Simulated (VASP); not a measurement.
# Uniaxial [001] stress on fcc Pt at PBEsol: Young's modulus, Poisson's ratio and the limit of linear elasticity between −2 % and +2 % strain

Platinum electrodes and thin beams in microdevices are loaded along one direction while their sides are free to move. To design such a part, one must know how much stress a given strain costs, how far the metal contracts sideways, and up to what strain constant moduli may be used. We address this for a perfect Pt crystal pulled or pressed along [001], calculated with PBEsol in nine steps from −2 % to +2 %. Strains are measured from the relaxed cubic crystal, and tension is positive for both strain and stress. The strain energy is given per atom above that same crystal. With one atom in the primitive cell, symmetry keeps the force on it at zero, so the whole response is a change of cell shape.

## Calculations

The start is an entry of the ASE's table of reference states database. The crystal was relaxed with PBEsol. Strain is imposed along [001]; the strain across the axis is adjusted until the stress across it vanishes, and the atoms are relaxed with PBEsol. VASP 6.6.1, plane waves with PAW, cutoff 450 eV, no spin polarisation, no spin-orbit coupling, k mesh 26×26×26, static lattice. The same in all rows: band gap on the k mesh at PBEsol: 0.000 eV.

Notes on method and selection:

- Runs that did not converge, have known faults or may not be shown are not listed, and runs on Ansatz's PAW sets soft_1 and soft_2 are kept to separate tables.

Columns:

- strain (%): strain along the axis (tension positive).
- transverse strain (%): strain across the axis.
- stress (GPa): stress along the axis, tension positive.
- strain energy (meV/atom): energy per atom above the relaxed crystal.

Input lines of one member:

```
PREC = Accurate
ENCUT = 450
EDIFF = 1E-07
NELM = 120
ISMEAR = 1
SIGMA = 0.15
LREAL = .FALSE.
ALGO = Normal
GGA = PS
NBANDS = 11
LASPH = .TRUE.
LORBIT = 11
KPAR = 2
IBRION = 1
NSW = 25
```

Command (options for logging and memory left out): `mpirun -np 2 vasp_std`

## Numbers

| member | strain (%) | transverse strain (%) | stress (GPa) | strain energy (meV/atom) |
| --- | --- | --- | --- | --- |
| −2 % | −2.0 | 0.876 | −2.71 | 2.591 |
| −1.5 % | −1.5 | 0.651 | −2.08 | 1.474 |
| −1 % | −1.0 | 0.429 | −1.42 | 0.6692 |
| −0.5 % | −0.5 | 0.213 | −0.73 | 0.1740 |
| 0 % | 0.0 | 0.002 | 0.00 | 0.00650 |
| +0.5 % | 0.5 | −0.203 | 0.75 | 0.1781 |
| +1 % | 1.0 | −0.402 | 1.53 | 0.6984 |
| +1.5 % | 1.5 | −0.596 | 2.32 | 1.576 |
| +2 % | 2.0 | −0.786 | 3.13 | 2.815 |

transverse strain (%) against strain (%):

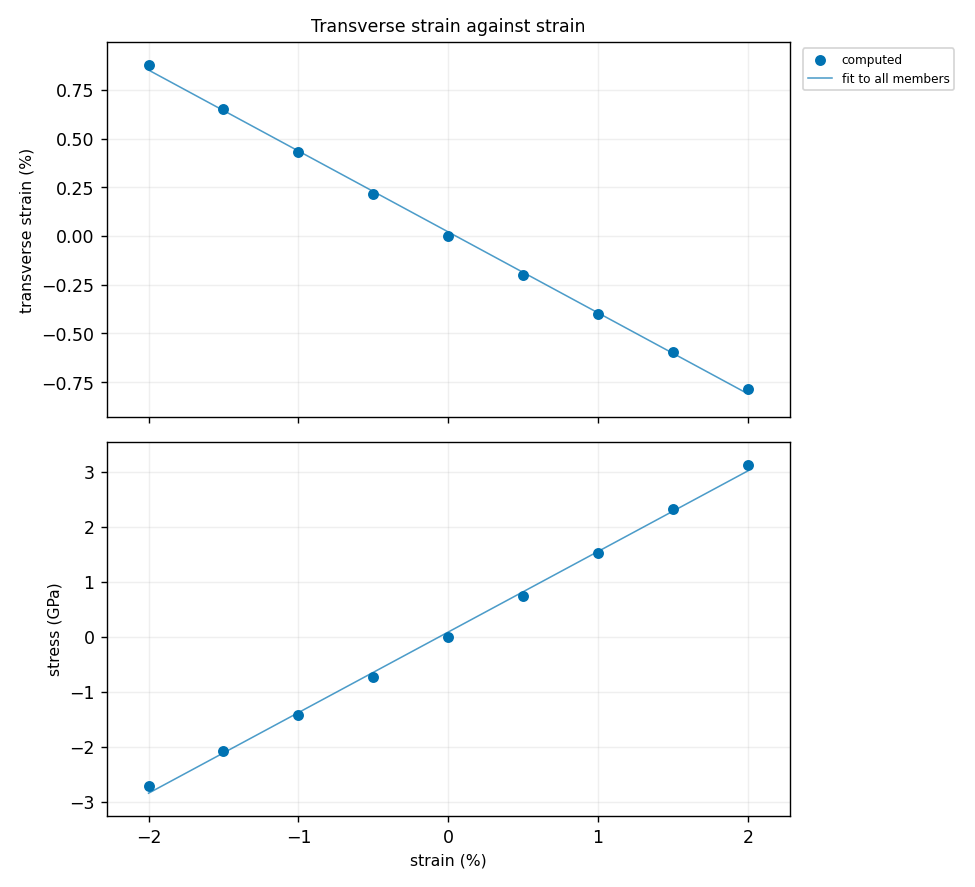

Least-squares fits to the whole series, with x = strain (%); R² and errors in the fitted variable (y, or ln y where the fit is in ln y):

| y | members | fit | R² | rms residual | leave-one-out rms | the same for the mean of the others |
| --- | --- | --- | --- | --- | --- | --- |
| transverse strain (%) | 9 | y = 0.02044 − 0.4156 x | 1.00 | 0.016 | 0.022 | 0.60 |
| stress (GPa) | 9 | y = 0.08778 + 1.465 x | 1.00 | 0.078 | 0.11 | 2.1 |

## Mechanism

Stress rises and transverse strain falls at every step from −2 % to +2 %. The moduli at small strain follow from the ±0.5 % rows:

- Young's modulus along [001]: $E$ = (0.75 + 0.73) / 0.010 = 148 GPa.
- Poisson's ratio: $\nu$ = (0.203 + 0.213) / 1.0 = 0.416.
- Bulk modulus: $B = E/[3(1-2\nu)]$ = 148 / (3 × (1 − 2 × 0.416)) = 294 GPa.
- Tetragonal shear modulus: $C' = (C_{11}-C_{12})/2 = E/[2(1+\nu)]$ = 148 / (2 × (1 + 0.416)) = 52.3 GPa.

$B$ is the least certain of these, because an error of 0.001 in $\nu$ shifts it by about 1 %. $C_{44}$ does not enter this deformation and cannot be obtained from it.

Pt resists a change of volume much more strongly than a tetragonal change of shape, which is why $\nu$ is close to one half. In $1/E = 1/(9B) + 1/(3C')$ the shear term supplies 148 / (3 × 52.3) = 0.94 of the compliance.

The response is not quite linear. The slope of stress against strain grows from (2.71 − 2.08) / 0.005 = 126 GPa between the two most compressed rows to (3.13 − 2.32) / 0.005 = 162 GPa between the two most stretched. Pt thus stiffens in [001] tension and softens in compression, the reverse of what the weakening of stretched bonds alone would suggest.

Symmetry offers a reason. An fcc crystal is also a body-centred tetragonal one with $c/a = \sqrt{2}$, and compression along [001] with free sides moves it towards $c/a = 1$, the bcc structure. There the uniaxial stress must vanish again, so the resistance has to weaken along that path. Part of the asymmetry is geometric, since the stress refers to the current cross-section. Per original area, the end values become 3.13 × (1 − 0.786 / 100)² = 3.08 GPa and 2.71 × (1 + 0.876 / 100)² = 2.76 GPa in magnitude, so most of the asymmetry remains.

## Exceptions

Largest departures from the fit to the whole series:

| member | transverse strain (%) | fit | computed − fit | in rms residuals |
| --- | --- | --- | --- | --- |
| +2 % | −0.786 | −0.811 | +0.025 | 1.6 |
| −2 % | 0.876 | 0.852 | +0.024 | 1.6 |
| 0 % | 0.002 | 0.020 | −0.018 | 1.2 |
| +0.5 % | −0.203 | −0.187 | −0.016 | 1.0 |

The departures from the straight line for transverse strain form a pattern: both end members lie above it, by 0.025 and 0.024 percentage points, while 0 % and +0.5 % lie below. This is the mark of a curved response fitted by a line, not of faulty members. The stress behaves alike, and its fitted intercept of 0.088 GPa is a product of the same curvature, since the unstrained row has 0.00 GPa.

The unstrained row does show one numerical oddity. Its strain energy is 0.0065 meV/atom where zero is expected. The likeliest cause is the plane-wave basis: a cell relaxation keeps the basis of its starting cell, whereas a fresh run builds one for the final cell. The transverse strain of 0.002 % in this row probably reflects a slight residual stress left by the relaxation; it is far too small to account for the energy.

## Applications

**What stress and sideways contraction go with 0.8 % tension?**
A quadratic form, $\sigma = 1.47\,\varepsilon + 0.053\,\varepsilon^2$ (GPa, $\varepsilon$ in %), reproduces the nine stresses with a typical miss of 0.01 GPa, against 0.078 GPa for the straight line and about 2 GPa for the scatter about the mean. The linear coefficient is the slope of the fitted line; the quadratic one follows from the two end rows, (3.13 − 2.71) / (2 × 4) = 0.053. At 0.8 % the form gives 1.47 × 0.8 + 0.053 × 0.8 × 0.8 = 1.21 GPa. For the contraction, interpolation between +0.5 % and +1 % gives −0.203 − 0.6 × (0.402 − 0.203) = −0.322 %.

**Is one strained cell enough to obtain Young's modulus?**
At 1 % strain, tension alone gives 1.53 / 0.010 = 153 GPa and compression alone 1.42 / 0.010 = 142 GPa. Their mean, (153 + 142) / 2 = 147.5 GPa, agrees with the 148 GPa from ±0.5 %. A pair of opposite strains cancels the leading curvature; a single cell leaves an error of about 4 %.

**Does the energy offset matter when moduli are fitted to energies?**
For a harmonic crystal, the mean energy of the ±1 % rows should be four times that of the ±0.5 % rows. As printed, the ratio is (0.6692 + 0.6984) / (0.1740 + 0.1781) = 3.88. With 0.0065 meV/atom subtracted from each energy it becomes (0.6692 + 0.6984 − 2 × 0.0065) / (0.1740 + 0.1781 − 2 × 0.0065) = 3.99. The offset therefore appears to be common to these rows and should be removed before small strains are used.

## Closing remarks

With a constant modulus of 148 GPa, the stress is right to about 1 % at ±0.5 % strain and to about 4 % at ±1 %. At +2 % the computed stress is 6 % larger than the linear value, and at −2 % it is 8 % smaller in magnitude. Linear elasticity thus serves well up to about 1 %, and beyond that the quadratic term is worth keeping within the calculated range.

The lattice is static, and thermal motion would normally lower the moduli. Spin-orbit coupling, which is strong in Pt, is left out; we assign no sign to its effect. No measured moduli are compared here. The crystal is also free of dislocations, whereas ordinary bulk Pt yields at stresses far below the gigapascals reached at the ends of the series. The larger strains are therefore relevant mainly to very small or nearly defect-free pieces.

[Logs are printed without paths, hosts, clocks, repeated set-up lines and the standing remarks that a program may print on its own settings, such as how far it seeks lower states.]
